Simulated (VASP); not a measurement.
# Wall time of one PBE run on the model cell Mg3SbAs with different VASP solvers and mixing settings

The quantity calculated is the wall time of one self-consistent PBE run on a five-atom model cell of Mg3SbAs, for eight choices of electronic solver or density mixing. The reference is the run with ALGO = Normal, which takes 18.2 s. The question is how far these choices change the time, and whether the number of SCF cycles accounts for the change. It matters because the same choice is repeated in every step of a relaxation or a screening study. All eight runs end in the same insulating state with a small indirect gap, and their energies agree to the printed 0.000 meV/atom, so only the path to convergence differs.

## How the numbers were made

A model structure made by substituting elements in a known one; it need not exist. VASP 6.6.1, plane waves with PAW, PBE, 5 atoms at fixed positions without symmetry, no spin polarisation, no spin-orbit coupling. Held fixed: cutoff 400 eV, k mesh 5×5×3, ISMEAR = -1, SIGMA = 0.05 eV and 2 MPI ranks. Each row is named by the tags or value that set it apart; differences are taken from the run 'ALGO = Normal'. All ran on Intel(R) Xeon(R) 6975P-C (Granite Rapids), shared with other work, so times are rough. The same in all rows: energy per atom extrapolated to zero smearing, less that of the reference (ALGO = Normal): 0.000 meV/atom.

Notes on method and selection:

- Runs that did not converge, have known faults or may not be shown are not listed, and runs on Ansatz's PAW sets soft_1 and soft_2 are kept to separate tables.

Columns:

- cycles: SCF cycles.

Input lines of one member:

```
PREC = Accurate
ENCUT = 400
EDIFF = 1E-06
NELM = 100
ISMEAR = -1
SIGMA = 0.05
LREAL = .FALSE.
ALGO = Normal
GGA = PE
NBANDS = 14
LORBIT = 11
KPAR = 2
ISIF = 2
```

Command (options for logging and memory left out): `mpirun -np 2 vasp_std`

## The series

| member | cycles | wall time (s) |
| --- | --- | --- |
| IMIX = 1, AMIX = 0.2 | 35 | 39.0 |
| ALGO = Damped | 22 | 24.0 |
| ALGO = VeryFast | 20 | 24.0 |
| AMIX = 0.1, BMIX = 0.01 | 17 | 24.0 |
| ALGO = Normal | 14 | 18.2 |
| ALGO = Fast | 14 | 17.8 |
| AMIX = 0.8 | 13 | 17.8 |
| ALGO = All | 14 | 17.2 |

wall time (s) by member:

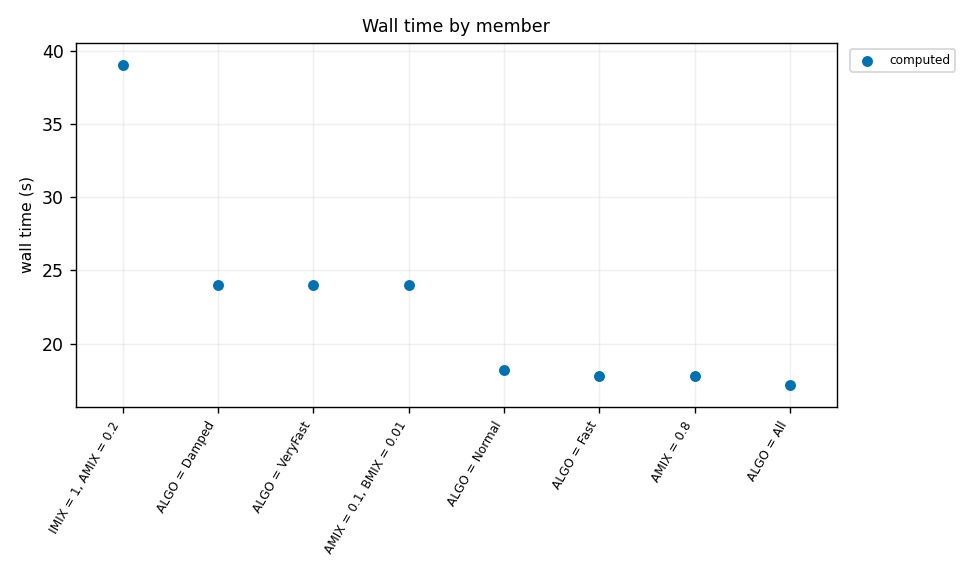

## Why the values move as they do

Four runs need 13 or 14 cycles and take 17.2 to 18.2 s. Three need 17 to 22 cycles and take 24.0 s each. Plain mixing (IMIX = 1, AMIX = 0.2) needs 35 cycles and 39.0 s. On shared hosts only this last run stands clearly apart from the fastest four, by a factor of at least 39.0 / 18.2 = 2.14.

The simplest model rests on two assumptions. First, some work is done once per run, such as the set-up and the final forces and stress; it takes a time t₀. Second, every cycle handles the same plane waves, bands and k points, and so takes the same time c, whatever the solver. For N cycles the wall time is then

t = t₀ + c·N.

N is read from the table, which leaves two parameters.

The size of N under plain mixing can be estimated. If a fraction A of the density residual is added in each cycle, and screening and the Kerker damping are ignored, the density error shrinks by q = 1 − A per cycle. The energy error goes as the square of the density error, so a starting error E₀ falls to EDIFF after

N ≈ ln(E₀/EDIFF) / (2 ln(1/q)).

With A = 0.2, EDIFF = 10⁻⁶ eV and E₀ taken roughly as 1 eV, ln(E₀/EDIFF) is roughly 14 and ln(1/0.8) roughly 0.22, which gives 14 / (2 × 0.22) ≈ 32 cycles, the right size for the 35 observed.

The default mixer instead combines the residuals of earlier cycles and so learns how the density responds. The first step then matters much less: AMIX = 0.8 needs 13 cycles, and AMIX = 0.1 with BMIX = 0.01 needs 17.

The 20 cycles of ALGO = VeryFast have another likely cause. By default VASP holds the density fixed for roughly twelve cycles at the start with this solver, against roughly five with ALGO = Normal.

## Testing the model

The line is fixed on ALGO = Normal (14 cycles, 18.2 s) and IMIX = 1, AMIX = 0.2 (35 cycles, 39.0 s). These two share the solver and differ only in the mixing.

c = (39.0 − 18.2) / (35 − 14) = 20.8 / 21 = 0.99 s per cycle

t₀ = 18.2 − 14 × 0.99 = 4.34 s

Four other members follow from their cycle counts:

- AMIX = 0.8: 4.34 + 13 × 0.99 = 17.2 s; the table has 17.8 s.
- AMIX = 0.1, BMIX = 0.01: 4.34 + 17 × 0.99 = 21.2 s; the table has 24.0 s.
- ALGO = VeryFast: 4.34 + 20 × 0.99 = 24.1 s; the table has 24.0 s.
- ALGO = Damped: 4.34 + 22 × 0.99 = 26.1 s; the table has 24.0 s.

ALGO = Fast and ALGO = All also need 14 cycles, so the model gives both the 18.2 s of the reference; the table has 17.8 s and 17.2 s.

Over the six members not used to fix the line, the mean absolute miss is (0.6 + 2.8 + 0.1 + 2.1 + 0.4 + 1.0) / 6 = 1.2 s. The same six times scatter about their own mean of 20.8 s by (3.0 + 3.2 + 3.2 + 3.2 + 3.0 + 3.6) / 6 = 3.2 s on average. The cycle count thus does better than the mean, but the test is a mild one, because these six times span only a factor of 24.0 / 17.2 = 1.40.

## Departures from the trend

The largest departure, table minus model, is 24.0 − 21.2 = 2.8 s for AMIX = 0.1, BMIX = 0.01. This run uses the same solver as both members that fix the line, so a different solver cost cannot be the reason. The assumption most likely to fail here is that a second of wall time buys the same amount of work in every run, since other jobs shared the hosts.

The next largest is −2.1 s for ALGO = Damped. A damped step may well be cheaper than a Davidson step, which would break the assumption of one c for all solvers and has the right sign. However, ALGO = VeryFast, which should also have cheap cycles, departs by only −0.1 s, and the Damped departure is smaller than the one found without any change of solver. These times therefore give no reliable cost per cycle for each solver. The runs with 17, 20 and 22 cycles all take 24.0 s, so within this group the cycle count explains nothing; the model only separates the group from the faster runs and from plain mixing.

## What to take away

For this small insulating cell, between 13 and 35 cycles, the wall time follows the cycle count to within about 3 s. The one clear loss of time comes from plain mixing; the other settings are too close to rank by time. Runs that did not converge are not listed, so the table does not show which settings are robust.

Two effects left out would lengthen a run by more than the table's whole spread, a factor of 39.0 / 17.2 = 2.27. A hybrid functional must evaluate exchange between pairs of bands and often costs roughly ten times as much or more. Doubling the number of atoms at the same k mesh doubles both the bands and the plane waves, so each cycle has roughly 2 × 2 = 4 times the work.

[Logs are printed without paths, hosts, clocks, repeated set-up lines and the standing remarks that a program may print on its own settings, such as how far it seeks lower states.]
